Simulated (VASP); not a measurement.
# Uniaxial [001] strain of bcc vanadium at PBEsol: transverse strain, stress, strain energy and elastic moduli from −2 % to +2 %

Vanadium is a body-centred cubic transition metal whose cohesion comes largely from a partly filled d band. The nine members are this one crystal, stretched or compressed along a cube axis while its sides are free to adjust. We want the stress, the sideways strain and the stored energy for a given axial strain, because these set the load and the lattice mismatch that a strained vanadium part or film carries. Strains are measured from the PBEsol-relaxed crystal, tension is positive, and energies are per atom above that crystal. Because the cell holds one atom, on which the forces vanish by symmetry, the response is purely that of the cell shape and volume.

## Calculations

The start is an entry of the ASE's table of reference states database. The crystal was relaxed with PBEsol. Strain is imposed along [001]; the strain across the axis is adjusted until the stress across it vanishes, and the atoms are relaxed with PBEsol. VASP 6.6.1, plane waves with PAW, cutoff 450 eV, no spin polarisation, no spin-orbit coupling, k mesh 27×27×27, static lattice. The same in all rows: band gap on the k mesh at PBEsol: 0.000 eV.

Notes on method and selection:

- Runs that did not converge, have known faults or may not be shown are not listed, and runs on Ansatz's PAW sets soft_1 and soft_2 are kept to separate tables.

Columns:

- strain (%): strain along the axis (tension positive).
- transverse strain (%): strain across the axis.
- stress (GPa): stress along the axis, tension positive.
- strain energy (meV/atom): energy per atom above the relaxed crystal.

Input lines of one member:

```
PREC = Accurate
ENCUT = 450
EDIFF = 1E-07
NELM = 120
ISMEAR = 1
SIGMA = 0.15
LREAL = .FALSE.
ALGO = Normal
GGA = PS
NBANDS = 12
LASPH = .TRUE.
LORBIT = 11
KPAR = 2
IBRION = 1
NSW = 25
```

Command (options for logging and memory left out): `mpirun -np 2 vasp_std`

## Data

| member | strain (%) | transverse strain (%) | stress (GPa) | strain energy (meV/atom) |
| --- | --- | --- | --- | --- |
| −2 % | −2.0 | 0.683 | −4.00 | 3.81 |
| −1.5 % | −1.5 | 0.505 | −3.00 | 2.25 |
| −1 % | −1.0 | 0.331 | −1.98 | 1.13 |
| −0.5 % | −0.5 | 0.159 | −0.98 | 0.41 |
| 0 % | 0.0 | −0.010 | 0.01 | 0.10 |
| +0.5 % | 0.5 | −0.175 | 1.00 | 0.18 |
| +1 % | 1.0 | −0.342 | 1.95 | 0.66 |
| +1.5 % | 1.5 | −0.504 | 2.88 | 1.49 |
| +2 % | 2.0 | −0.666 | 3.79 | 2.68 |

transverse strain (%) against strain (%):

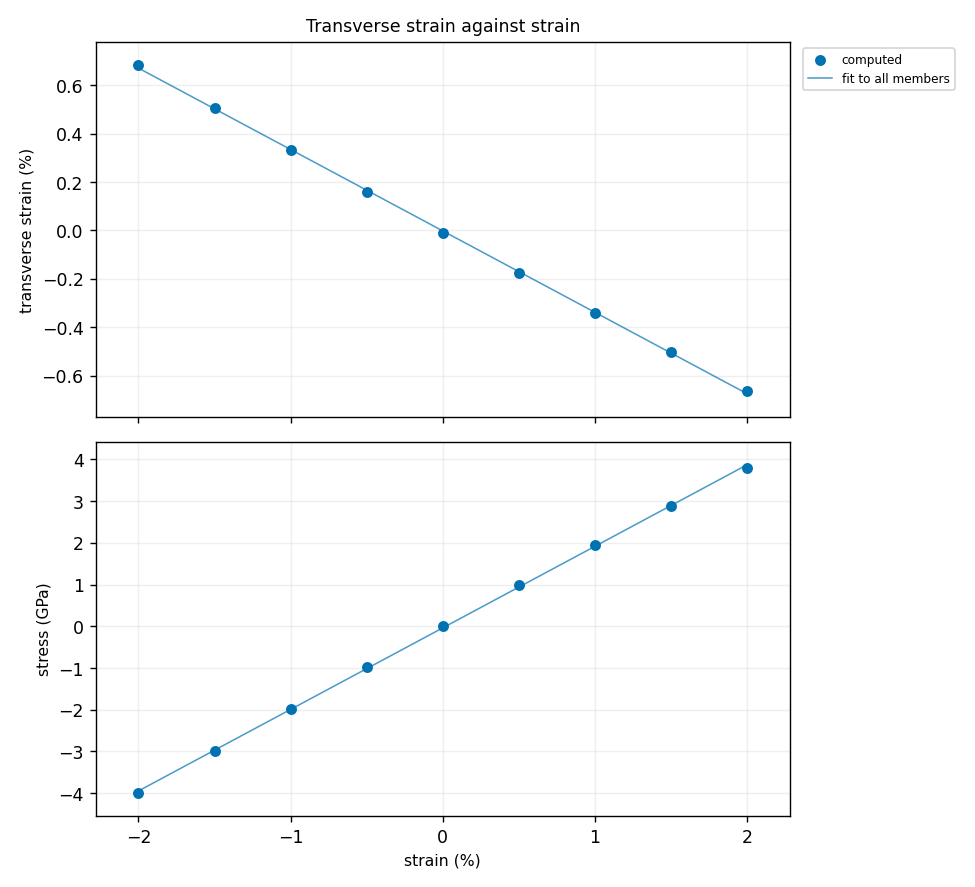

Least-squares fits to the whole series, with x = strain (%); R² and errors in the fitted variable (y, or ln y where the fit is in ln y):

| y | members | fit | R² | rms residual | leave-one-out rms | the same for the mean of the others |
| --- | --- | --- | --- | --- | --- | --- |
| transverse strain (%) | 9 | y = −0.002111 − 0.3368 x | 1.00 | 0.0067 | 0.0096 | 0.49 |
| stress (GPa) | 9 | y = −0.03667 + 1.955 x | 1.00 | 0.046 | 0.065 | 2.8 |

## Reading the trend

From −2 % to +2 % the stress rises from −4.00 to 3.79 GPa, and the transverse strain falls from 0.683 to −0.666 %. Both are close to straight lines. The energy is close to a parabola, but a lopsided one: 3.81 meV/atom at −2 % against 2.68 at +2 %.

A model with three parameters, E, ν and p, and an energy offset taken from the unstrained row describes this.

1. We assume that stress is linear in strain. For a cubic crystal with axial strain ε and transverse strain t, the axial stress is σ = C₁₁ε + 2C₁₂t, and the transverse stress is C₁₂ε + (C₁₁ + C₁₂)t.

2. The sides are free, so the transverse stress is zero. This gives t = −νε with ν = C₁₂/(C₁₁ + C₁₂), and σ = Eε with E = C₁₁ − 2νC₁₂.

3. The elastic work per atom is ½VEε², where V is the atomic volume, roughly 13 Å³.

4. This parabola is symmetric, so the lopsidedness needs another term. Curvature of the stress is too weak to supply it: the work under the stress column is roughly 3.2 meV/atom out to −2 % and 3.1 meV/atom out to +2 %, nearly equal. The likely cause is the plane-wave basis. The stress is evaluated with a fixed set of plane waves, whereas each energy belongs to a set rebuilt at the same cutoff. With an incomplete basis the computed stress then contains a spurious isotropic tension p, known as the Pulay stress. The volume changes by (1 − 2ν)ε along the path, so the energy gains a term −pV(1 − 2ν)ε.

The result is U = U₀ − pV(1 − 2ν)ε + ½VEε², with U₀ the energy of the unstrained row. The spurious tension makes the relaxed cell slightly too small, so a small stretch costs less energy than an equal compression, as the table shows.

The moduli follow from E and ν: the bulk modulus is B = E/[3(1 − 2ν)], and the tetragonal shear modulus is C′ = (C₁₁ − C₁₂)/2 = E/[2(1 + ν)].

## Testing the model

We fix the model on the −1 % and +1 % members, with strain x in %.

- E: (1.95 + 1.98)/2.0 = 1.965 GPa per %, and 1.965 × 100 = 196.5 GPa.
- ν: (0.331 + 0.342)/2.0 = 0.3365, so 1 − 2ν is 1 − 2 × 0.3365 = 0.327.
- Linear energy term: (0.66 − 1.13)/2.0 = −0.235 meV/atom per %. With 1 GPa·Å³ = 6.24 meV, p = 0.235/(0.01 × 13 × 0.327 × 6.24) ≈ 0.9 GPa.

The quadratic energy term is not fitted: 0.5 × 13 × 196.5 × 0.0001 × 6.24 = 0.80 meV/atom per %². U₀ is 0.10 meV/atom.

**−2 %**
- Stress: 1.965 × (−2.0) = −3.93 GPa; table −4.00.
- Transverse strain: −0.3365 × (−2.0) = 0.673 %; table 0.683.
- Energy: the linear term is 0.235 × 2.0 = 0.47 and the quadratic term 0.80 × 2.0 × 2.0 = 3.20, so 0.10 + 0.47 + 3.20 = 3.77 meV/atom; table 3.81.

**−1.5 %**
- Stress: 1.965 × (−1.5) = −2.95 GPa; table −3.00.
- Transverse strain: −0.3365 × (−1.5) = 0.505 %; table 0.505.
- Energy: the terms are 0.235 × 1.5 = 0.35 and 0.80 × 1.5 × 1.5 = 1.80, so 0.10 + 0.35 + 1.80 = 2.25 meV/atom; table 2.25.

**+0.5 %**
- Stress: 1.965 × 0.5 = 0.98 GPa; table 1.00.
- Transverse strain: −0.3365 × 0.5 = −0.168 %; table −0.175.
- Energy: the terms are 0.235 × 0.5 = 0.12, now subtracted, and 0.80 × 0.5 × 0.5 = 0.20, so 0.10 − 0.12 + 0.20 = 0.18 meV/atom; table 0.18.

**+2 %**
- Stress: 1.965 × 2.0 = 3.93 GPa; table 3.79.
- Transverse strain: −0.3365 × 2.0 = −0.673 %; table −0.666.
- Energy: 0.10 − 0.47 + 3.20 = 2.83 meV/atom; table 2.68.

The moduli are B = 196.5/(3 × 0.327) = 200 GPa and, with 1 + 0.3365 = 1.3365, C′ = 196.5/(2 × 1.3365) = 73.5 GPa. With C₁₁ = B + 4C′/3 and C₁₂ = B − 2C′/3, these give C₁₁ as 200 + 4 × 73.5 / 3 = 298 GPa and C₁₂ as 200 − 2 × 73.5 / 3 = 151 GPa. B is the more sensitive: a change of 0.005 in ν shifts it by about 3 %. The shear modulus C₄₄ does not enter this deformation.

## Where the trend breaks

Largest departures from the fit to the whole series:

| member | transverse strain (%) | fit | computed − fit | in rms residuals |
| --- | --- | --- | --- | --- |
| −2 % | 0.683 | 0.671 | +0.012 | 1.7 |
| +2 % | −0.666 | −0.676 | +0.010 | 1.5 |
| 0 % | −0.010 | −0.002 | −0.008 | 1.2 |
| −0.5 % | 0.159 | 0.166 | −0.007 | 1.1 |

Hooke's law fails first in tension. At +2 % the model stress is 0.14 GPa too high; at −2 % its magnitude is 0.07 GPa too low. The slope between neighbouring rows stays near 2.0 GPa per % in compression but drops to (3.79 − 2.88)/0.5 = 1.82 GPa per % in the last tensile step. The assumption that fails is the constant modulus. Stretching bcc along [001] leads towards fcc, where symmetry makes the energy stationary, so the stress must eventually turn over. The ordinary weakening of stretched bonds acts in the same direction.

The transverse departures are positive at both ends and negative in the middle. This is a slight curvature: the sideways response per unit of axial strain is somewhat larger in compression than in tension. Two smaller effects are numerical. The relaxed cell still carries a slight isotropic tension in a fresh calculation, hence the −0.010 % in the unstrained row. At +0.5 % the first trial value was kept, with a small stress left across the axis. The 0.10 meV/atom of the unstrained row is far more than so small a contraction can store; a reference energy taken on a slightly different plane-wave basis is the likely reason.

## Rules of thumb and their limits

For the PBEsol crystal, E = 197 GPa reproduces the stress to within about 0.02 GPa, and ν = 0.34 the transverse strain to within about 0.01 %, for strains up to 1 % of either sign. At 2 % tension linear elasticity overestimates the stress by 0.14/3.79, or about 4 %. Strain energies need the linear basis term as well, or a higher cutoff that removes it.

The largest omitted effect is probably the error of the functional. PBEsol tends to make 3d metals too dense and therefore too stiff, by very roughly 10 to 30 % in the moduli. That exceeds the 5 % difference between the stress-to-strain ratios at −2 % and +2 %, so the moduli should be taken as probable overestimates for real vanadium.

[Logs are printed without paths, hosts, clocks, repeated set-up lines and the standing remarks that a program may print on its own settings, such as how far it seeks lower states.]
